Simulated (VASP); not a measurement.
# Γ, L and Δ conduction valleys of germanium against volume, from HSE06 with spin-orbit coupling

We calculate the lowest conduction level at Γ, the level at L and the minimum along Γ–X (the Δ valley) of diamond-structure Ge at seven volumes, from 6% below to 6% above the PBEsol equilibrium volume V0. Each energy is counted from the valence-band top at Γ in the same cell, so a positive slope means that the valley moves away from that top as the crystal expands. The question is how fast each valley moves and whether their order changes. The order matters because it decides whether the gap is direct, and which effective mass the electrons at the band edge have.

## Systems and settings

The start is a typed prototype cell. The crystal was relaxed with PBEsol. It is scaled evenly about that cell, atoms relaxed with PBEsol. VASP 6.6.1, plane waves with PAW, cutoff 470 eV, no spin polarisation. Band edges are single points at HSE06 with spin-orbit coupling on these cells, k mesh 5×5×5, read on short lines of k points at the zone centre and through the valleys; energies are counted from the valence-band top at the zone centre.  All levels use the PAW data sets made with PBE.

Notes on method and selection:

- A valley's energy from the valence-band top holds the shift of that top as well as the shift of the valley.
- The gap closes at PBEsol in some of these cells, so their relaxation was done on a metallic state; symmetry fixes the atomic sites and the volumes are set by scaling, so this doesn't put single points off the line.
- Runs that did not converge, have known faults or may not be shown are not listed, and runs on Ansatz's PAW sets soft_1 and soft_2 are kept to separate tables.

Columns:

- 100 ln(V/V0): 100 ln(V/V0), V0 the volume of the reference cell.
- Γ level (eV): lowest conduction level at Γ.
- Δ valley (eV): minimum of the conduction band along Γ–X.
- L valley (eV): conduction level at L.

## Data

| member | 100 ln(V/V0) | Γ level (eV) | Δ valley (eV) | L valley (eV) |
| --- | --- | --- | --- | --- |
| V/V0 = 0.94 | −6.19 | 1.416 | 0.910 | 0.956 |
| V/V0 = 0.96 | −4.08 | 1.191 | 0.942 | 0.877 |
| V/V0 = 0.98 | −2.02 | 0.973 | 0.970 | 0.800 |
| V/V0 = 1 | 0.00 | 0.761 | 0.997 | 0.726 |
| V/V0 = 1.02 | 1.98 | 0.556 | 1.021 | 0.654 |
| V/V0 = 1.04 | 3.92 | 0.356 | 1.044 | 0.586 |
| V/V0 = 1.06 | 5.83 | 0.163 | 1.064 | 0.519 |

Γ level (eV) against 100 ln(V/V0):

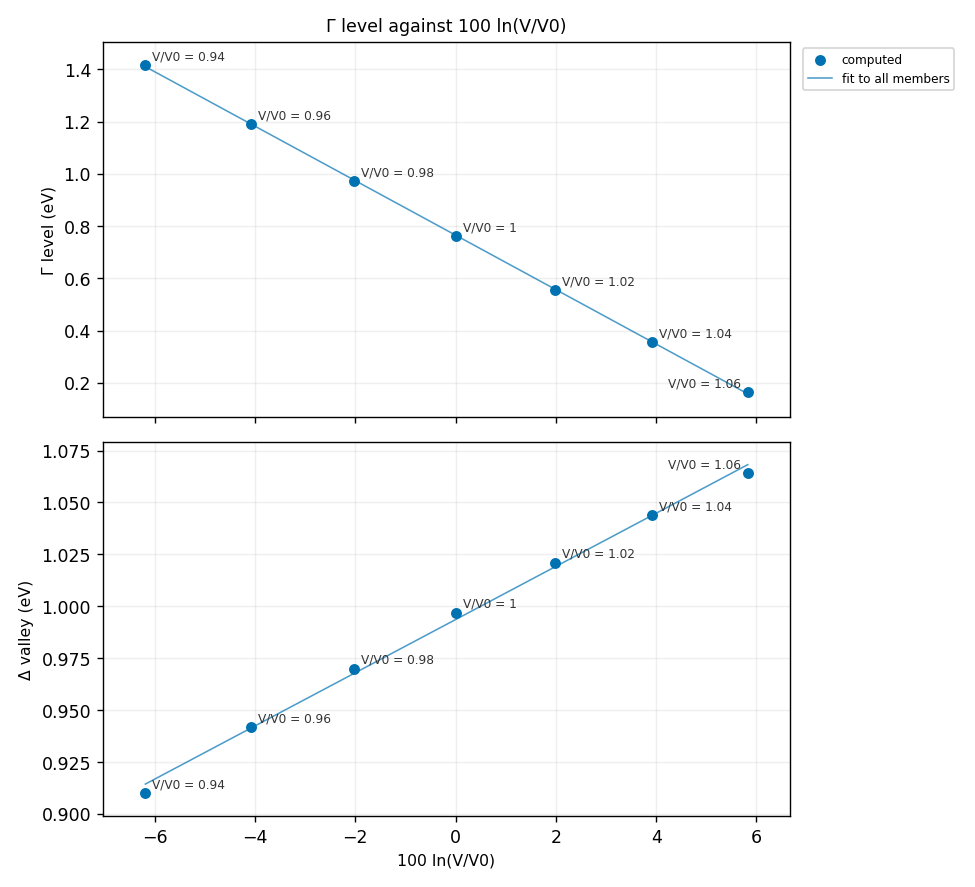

Least-squares fits to the whole series, with x = 100 ln(V/V0); R² and errors in the fitted variable (y, or ln y where the fit is in ln y):

| y | members | fit | R² | rms residual | leave-one-out rms | the same for the mean of the others |
| --- | --- | --- | --- | --- | --- | --- |
| Γ level (eV) | 7 | y = 0.7654 − 0.1043 x | 1.00 | 0.0037 | 0.0060 | 0.49 |
| Δ valley (eV) | 7 | y = 0.9936 + 0.01280 x | 1.00 | 0.0029 | 0.0048 | 0.060 |

## Interpretation

The order changes within the series. The lowest valley is Δ at V/V0 = 0.94, L from 0.96 to 1, and Γ from 1.02 upwards, where the gap is direct. Over the whole series the Γ level falls by 1.416 − 0.163 = 1.253 eV and L by 0.956 − 0.519 = 0.437 eV, while Δ rises by 1.064 − 0.910 = 0.154 eV.

A straight line for each valley follows from three assumptions.

1. Volume is the only variable. Even scaling keeps the cubic symmetry, so equivalent valleys stay equal and the atoms stay on their sites. For the same reason it does no harm that PBEsol closes the gap in some cells during relaxation.
2. With x = 100 ln(V/V0), each conduction level moves in proportion to x: ε(x) = ε(0) + A x.
3. The valence top does the same: ε_v(x) = ε_v(0) + A_v x.

Subtracting the third from the second gives

E(x) = E(0) + a x, with a = A − A_v.

The two parameters of a valley are its energy at V0 and its slope. The slope contains the motion of the valence top, but the difference between two valleys does not, so the change of order belongs to the conduction band alone.

The fitted slopes are −0.1043 eV per unit of x for Γ and +0.01280 for Δ; one unit of x is close to 1% in volume. Bonding theory offers a qualitative reason for the ranking. The Γ level is an antibonding combination of s orbitals, which a longer bond lowers strongly, whereas the valence top is a bonding p state, which a longer bond raises. Their separation therefore shrinks quickly. At L the conduction state has p character mixed in and responds less. The Δ state is largely p-like, and its energy stays nearly level with respect to the valence top.

## The model against the table

We fix the lines on V/V0 = 0.98 and 1.02, which lie 1.98 + 2.02 = 4.00 apart in x. The slopes, in eV per unit of x, are

- Γ: (0.556 − 0.973) / 4.00 = −0.10425
- Δ: (1.021 − 0.970) / 4.00 = +0.01275
- L: (0.654 − 0.800) / 4.00 = −0.0365

Three other members follow, starting from the 0.98 row.

**V/V0 = 1**, a step of 2.02:

- Γ: 0.973 − 0.10425 × 2.02 = 0.762 eV (table 0.761)
- Δ: 0.970 + 0.01275 × 2.02 = 0.996 eV (table 0.997)
- L: 0.800 − 0.0365 × 2.02 = 0.726 eV (table 0.726)

**V/V0 = 0.94**, a step of −4.17:

- Γ: 0.973 + 0.10425 × 4.17 = 1.408 eV (table 1.416)
- Δ: 0.970 − 0.01275 × 4.17 = 0.917 eV (table 0.910)
- L: 0.800 + 0.0365 × 4.17 = 0.952 eV (table 0.956)

**V/V0 = 1.06**, a step of 7.85:

- Γ: 0.973 − 0.10425 × 7.85 = 0.155 eV (table 0.163)
- Δ: 0.970 + 0.01275 × 7.85 = 1.070 eV (table 1.064)
- L: 0.800 − 0.0365 × 7.85 = 0.513 eV (table 0.519)

The largest miss is 0.008 eV, and the order is right in all three cells.

The same lines place the changes of lowest valley. Γ meets L after a step of (0.973 − 0.800) / (0.10425 − 0.0365) = 2.55, at x = 0.53, an expansion of about 0.5%. Δ meets L after a step of −(0.970 − 0.800) / (0.01275 + 0.0365) = −3.45, at x = −2.02 − 3.45 = −5.47, a compression of about 5%.

## Outliers

Largest departures from the fit to the whole series:

| member | Γ level (eV) | fit | computed − fit | in rms residuals |
| --- | --- | --- | --- | --- |
| V/V0 = 1.06 | 0.163 | 0.157 | +0.006 | 1.5 |
| V/V0 = 0.94 | 1.416 | 1.411 | +0.005 | 1.4 |
| V/V0 = 1 | 0.761 | 0.765 | −0.004 | 1.2 |
| V/V0 = 0.98 | 0.973 | 0.976 | −0.003 | 0.8 |

The departures are small but regular. For Γ the computed value lies above the fitted line at both ends, by 0.005 and 0.006 eV, and below it at V0 by 0.004 eV. The assumption that fails is the constant slope.

Between the first two rows the Γ slope is −0.225 / 2.11 = −0.107 eV per unit of x, and between the last two −0.193 / 1.91 = −0.101, a loss of about 5%. For L the loss is about 6%. Orbital couplings that fall as the inverse square of the bond length vary as exp(−2x/300), and their slope in x shrinks by the same factor. The midpoints of the two intervals lie about 10 apart in x, so the slope would weaken by about 2 × 10 / 300 = 0.067, or 7%. This is a likely cause for both.

Δ bends the other way, and its slope drops from 0.032 / 2.11 = 0.015 to 0.020 / 1.91 = 0.010, by nearly a third. In eV the change is no larger than that for Γ. It weighs more because the Δ slope is itself small, which also makes it the least safe of the three to carry outside the series. The inverse-square law doesn't account for this drop: if it governed both the Δ state and the valence top, their difference would lose only the same 7%.

## Rules of thumb and their limits

Within 6% of V0 on either side, one slope per valley gives the energies to about 0.01 eV and the order in every row.

No omitted effect that we know of rivals the 1.25 eV travel of the Γ level. The Γ–L separation at V0, however, is only 0.761 − 0.726 = 0.035 eV, and in real Ge it is known to be clearly larger. The true change to a direct gap should therefore need more expansion than the 0.5% found here. A reference volume 1% too large would by itself lower Γ against L by 0.07 eV. Lattice vibrations, also left out, lower the gap by roughly 0.1 eV at room temperature; only the part that differs between valleys affects their order.
